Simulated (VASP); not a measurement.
# Free energy, extrapolated energy and pressure of Ti2OsPt5 against smearing width: Fermi-Dirac and first-order Methfessel-Paxton at PBE

A common rule of thumb for metals keeps the smearing term, free energy minus extrapolated energy, below about 1 meV/atom. The problem is to find what this rule protects in Ti2OsPt5: the free energy, the energy extrapolated to zero smearing, or the pressure. The distinction matters when alloy phases are ranked by energy or when a metal layer for a contact is relaxed, since a width that is harmless for one quantity may spoil another. Cell, atoms and k mesh are fixed, and only the scheme and width change. All errors are differences from the Fermi-Dirac run at 0.01 eV, so they measure drift within PBE on this mesh, not distance from experiment.

## Set-up

One crystal without a Kohn-Sham gap, Ti2OsPt5 (I4/mmm, 8 atoms) (hypothetical: elements swapped on a known structure), at PBE; single-point runs at fixed cell and atoms on one k mesh (7×7×7), only the smearing changed. Program: VASP 6.6.1, plane waves and PAW (data sets made for PBE of release 64), scalar-relativistic without spin-orbit coupling, no spin polarisation. Cutoff 400 eV; on the k meshes the divisions times the cell-vector length are 39 Å or more.

Notes on method and selection:

- For Gaussian or Fermi-Dirac smearing the free energy falls as σ² times the density of states at the Fermi level; Methfessel-Paxton schemes cancel the leading order.
- At the smallest widths the mesh is too coarse for the step in the occupations, so the reference carries its own sampling error.
- Runs that did not converge, have known faults or may not be shown are not listed, and runs on Ansatz's PAW sets soft_1 and soft_2 are kept to separate tables.

Columns:

- width (eV): smearing width SIGMA.
- iterations: electronic iterations.
- free-energy error (meV/atom): free energy per atom minus that of the run with Fermi-Dirac smearing of 0.01 eV.
- energy error (meV/atom): energy per atom, extrapolated to zero smearing as the program prints it, minus that of the run with Fermi-Dirac smearing of 0.01 eV.
- pressure error (GPa): pressure minus that of the run with Fermi-Dirac smearing of 0.01 eV, compression positive.
- smearing term (meV/atom): free energy minus the extrapolated energy, per atom.

Input lines of one member:

```
PREC = Accurate
ENCUT = 400
EDIFF = 1E-06
NELM = 100
ISMEAR = -1
SIGMA = 0.01
LREAL = .FALSE.
ALGO = Normal
GGA = PE
LORBIT = 11
ISIF = 2
```

Command (options for logging and memory left out): `vasp_std`

## Data

| member | scheme | width (eV) | iterations | free-energy error (meV/atom) | energy error (meV/atom) | pressure error (GPa) | smearing term (meV/atom) |
| --- | --- | --- | --- | --- | --- | --- | --- |
| σ = 0.01 eV | Fermi-Dirac | 0.01 | 17 | 0.00 | 0.0000 | 0.0000 | −0.0952 |
| σ = 0.05 eV | Fermi-Dirac | 0.05 | 17 | −2.16 | −0.0067 | 0.0011 | −2.2501 |
| σ = 0.1 eV | Fermi-Dirac | 0.10 | 17 | −8.84 | −0.0143 | 0.0931 | −8.9248 |
| σ = 0.2 eV | Fermi-Dirac | 0.20 | 17 | −37.30 | 2.9177 | 0.5893 | −40.3126 |
| σ = 0.01 eV | Methfessel-Paxton, first order | 0.01 | 16 | 0.11 | 0.0137 | −0.0055 | −0.0013 |
| σ = 0.05 eV | Methfessel-Paxton, first order | 0.05 | 17 | 0.09 | −0.0053 | −0.0035 | −0.0023 |
| σ = 0.1 eV | Methfessel-Paxton, first order | 0.10 | 17 | 0.11 | −0.0090 | −0.0117 | 0.0273 |
| σ = 0.2 eV | Methfessel-Paxton, first order | 0.20 | 17 | 0.08 | −0.0200 | −0.0396 | 0.0096 |
| σ = 0.5 eV | Methfessel-Paxton, first order | 0.50 | 17 | ? | ? | ? | ? |

Cells marked ? are withheld until the estimate has been made.

## Why the values move as they do

Solution. With Fermi-Dirac occupations the free energy falls steeply, by 8.84 meV/atom at 0.1 eV and 37.30 meV/atom at 0.2 eV. The cause is the electronic entropy. For a flat density of states g, the free energy changes by −(π²/6)gσ². Dividing the size of the smearing term at 0.1 eV by (π²/6)σ² then gives g of about 0.54 states/eV per atom. Doubling the width should multiply the term by four. From 0.05 to 0.1 eV the factor is 8.9248 / 2.2501 = 3.97, but from 0.1 to 0.2 eV it is 40.3126 / 8.9248 = 4.52. The wider distribution evidently reaches energies where the density of states is higher.

The extrapolated energy removes the quadratic part. It is off by only −0.0143 meV/atom at 0.1 eV, although the smearing term there is far above the rule's limit. At 0.2 eV the cancellation fails and the error is 2.9177 meV/atom.

The pressure has no such protection, because it is minus the volume derivative of the free energy. It rises by 0.0931 GPa at 0.1 eV and 0.5893 GPa at 0.2 eV. At 0.05 eV it has moved by only 0.0011 GPa, far less than a quarter of the change at 0.1 eV, so the growth is not simply quadratic; sampling error or fine structure in the density of states may offset the drift there. The positive sign is what follows if expansion narrows the bands and raises g: the entropy then favours a larger volume.

First-order Methfessel-Paxton smearing cancels the quadratic term in the free energy itself. From 0.01 to 0.2 eV its free-energy error stays between 0.08 and 0.11 meV/atom. Most of this offset belongs to the reference, whose own smearing term is −0.0952 meV/atom. The pressure error reaches −0.0396 GPa at 0.2 eV, about one fifteenth of the Fermi-Dirac error in size. For Fermi-Dirac smearing, then, the rule is stricter than the extrapolated energy needs at 0.1 eV; for Methfessel-Paxton, a small smearing term goes with small drifts in all three quantities.

## Prediction

Plain estimates from the members shown:

- σ = 0.5 eV (Methfessel-Paxton, first order), mean of the 4 members shown: 0.10 meV/atom, standard deviation 0.013

The mean of the four Methfessel-Paxton members, 0.10 meV/atom, assumes that the plateau continues. At 0.5 eV, however, the occupations sample states that the narrower runs miss, and the Fermi-Dirac run at 0.2 eV already senses them.

These states are modelled as a step Δg in the density of states at a distance w from the Fermi level. The free energy of the step is −Δg times the occupation integrated twice over energy from w outward. With X = w/σ well above 1 and the Fermi level held fixed, the step changes the Fermi-Dirac free energy by −Δg σ² e^(−X) and the extrapolated energy, which is the mean of energy and free energy, by +Δg σ² (X/2) e^(−X).

Extrapolated-energy error plus smearing term gives 2.9177 − 40.3126 = −37.3949 meV/atom at 0.2 eV and −0.0143 − 8.9248 = −8.9391 meV/atom at 0.1 eV. The excess over quadratic growth is −37.3949 + 4 × 8.9391 = −1.6385 meV/atom. Hence X = 2 × 2.92 / 1.64 = 3.56, w = 0.71 eV and Δg = 0.0016 / 0.04 × e^3.56 = 1.4 states/eV per atom.

The same double integral with first-order Methfessel-Paxton occupations adds Δg σ² [X e^(−X²)/(4√π) − X² erfc(X)/4]. At 0.5 eV, X = 0.71 / 0.5 = 1.42 and the bracket is about 0.0042, giving 1.4 × 0.25 × 0.0042 = 0.0015 eV, or 1.5 meV/atom. The reference offset of 0.1 brings this to 1.6.

At 0.2 eV the model gives almost no step contribution, hence 0.10 against the 0.08 shown. Taking the quadratic baseline from the 0.05 eV run instead lowers the prediction to about 0.9, which sets an error of 0.7.

**Committed estimate, σ = 0.5 eV (Methfessel-Paxton, first order): free-energy error = 1.6 ± 0.7 meV/atom.**

## Outcome

| member | scheme | width (eV) | iterations | free-energy error (meV/atom) | energy error (meV/atom) | pressure error (GPa) | smearing term (meV/atom) |
| --- | --- | --- | --- | --- | --- | --- | --- |
| σ = 0.5 eV | Methfessel-Paxton, first order | 0.50 | 17 | 2.64 | −1.9465 | −0.1537 | 4.4914 |

| member | estimate | free-energy error (meV/atom) | computed | estimate − computed | miss in error bars |
| --- | --- | --- | --- | --- | --- |
| σ = 0.5 eV (Methfessel-Paxton, first order) | committed | 1.60 | 2.64 | −1.04 | 1.5 |
| σ = 0.5 eV (Methfessel-Paxton, first order) | mean | 0.10 | 2.64 | −2.54 |  |

free-energy error (meV/atom) against width (eV):

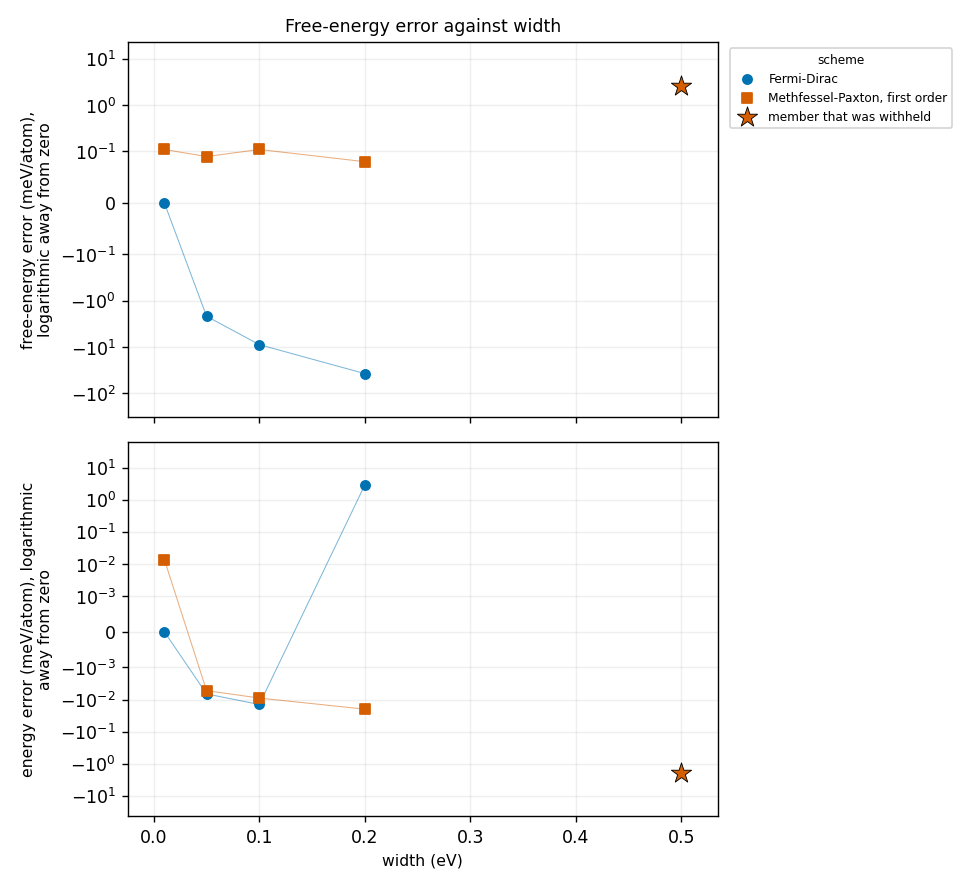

The computed free-energy error is 2.64 meV/atom. The estimate of 1.6 ± 0.7 was too low by 1.04, or 1.5 error bars, but it came closer than the mean of the narrower Methfessel-Paxton runs, which missed by 2.54.

The plateau did end, and with the positive sign expected if the occupations reach a higher density of states. The size was underestimated. A single sharp step was fitted to small remainders of two Fermi-Dirac runs, and the trial at 0.2 eV was no real test, because the step contributes almost nothing there. The error bar covered the choice of baseline but not the shape of the density of states.

The smearing term gives a hint of how the shape was wrong. For first-order Methfessel-Paxton it equals (σ/3) dF/dσ, with F the free energy. Without the reference offset the error is 2.64 − 0.10 = 2.54 meV/atom, so F grows locally as σ to the power 3 × 4.4914 / 2.54 = 5.3. The step model, its expression differentiated in the same way at X = 1.42, gives about 6.4. A more gradual change in the density of states, beginning closer to the Fermi level, would be one explanation.

## Residuals

Two runs stand apart, Fermi-Dirac at 0.2 eV and Methfessel-Paxton at 0.5 eV. The first has a smearing term of −40.3126 meV/atom, where quadratic growth from 0.1 eV would give 4 × (−8.9248) = −35.70. The second leaves a plateau of 0.08 to 0.11 meV/atom. Both fit a density of states that is higher away from the Fermi level.

They are closer relatives than their widths suggest. The derivative of the Fermi-Dirac occupation has a standard deviation of πσ/√3, that of the Gaussian underlying Methfessel-Paxton σ/√2. At equal σ the Fermi-Dirac step is thus about 2.6 times as broad, and Fermi-Dirac at 0.2 eV matches a Gaussian of roughly 0.5 eV. At this similar breadth the free-energy errors are −37.30 and 2.64 meV/atom, but the errors of the extrapolated energies are of similar size and opposite sign, 2.9177 and −1.9465. The advantage of Methfessel-Paxton in pressure is also smaller than at equal σ: 0.5893 / 0.1537 = 3.8.

The pressure errors of these two runs have opposite signs, as their free-energy errors do. This would follow if both free-energy errors grow in size as the cell expands: Fermi-Dirac smearing then pushes outward and Methfessel-Paxton pulls inward.

## Rules of thumb and their limits

For this crystal and mesh, the four Methfessel-Paxton runs from 0.01 to 0.2 eV agree in free energy within 0.03 meV/atom, and a width between them should do about as well. At 0.5 eV an estimate from narrower runs can miss by 1 meV/atom or more.

The 1 meV/atom rule passes only runs with small errors in all three quantities. It is needlessly strict for the extrapolated energy with Fermi-Dirac smearing at 0.05 and 0.1 eV.

Fermi-Dirac smearing also has a physical use. At room temperature, σ ≈ 0.026 eV, the thermal part of the electronic free energy, relative to zero temperature, is −2.2501 × (0.026 / 0.05)² = −0.6 meV/atom.

Spin-orbit coupling, left out here, matters in a crystal rich in Os and Pt. Most of its shift of the total energy should be common to all widths, so it would affect the drifts mainly by reshaping the density of states near the Fermi level.

[Logs are printed without paths, hosts, clocks, repeated set-up lines and the standing remarks that a program may print on its own settings, such as how far it seeks lower states.]
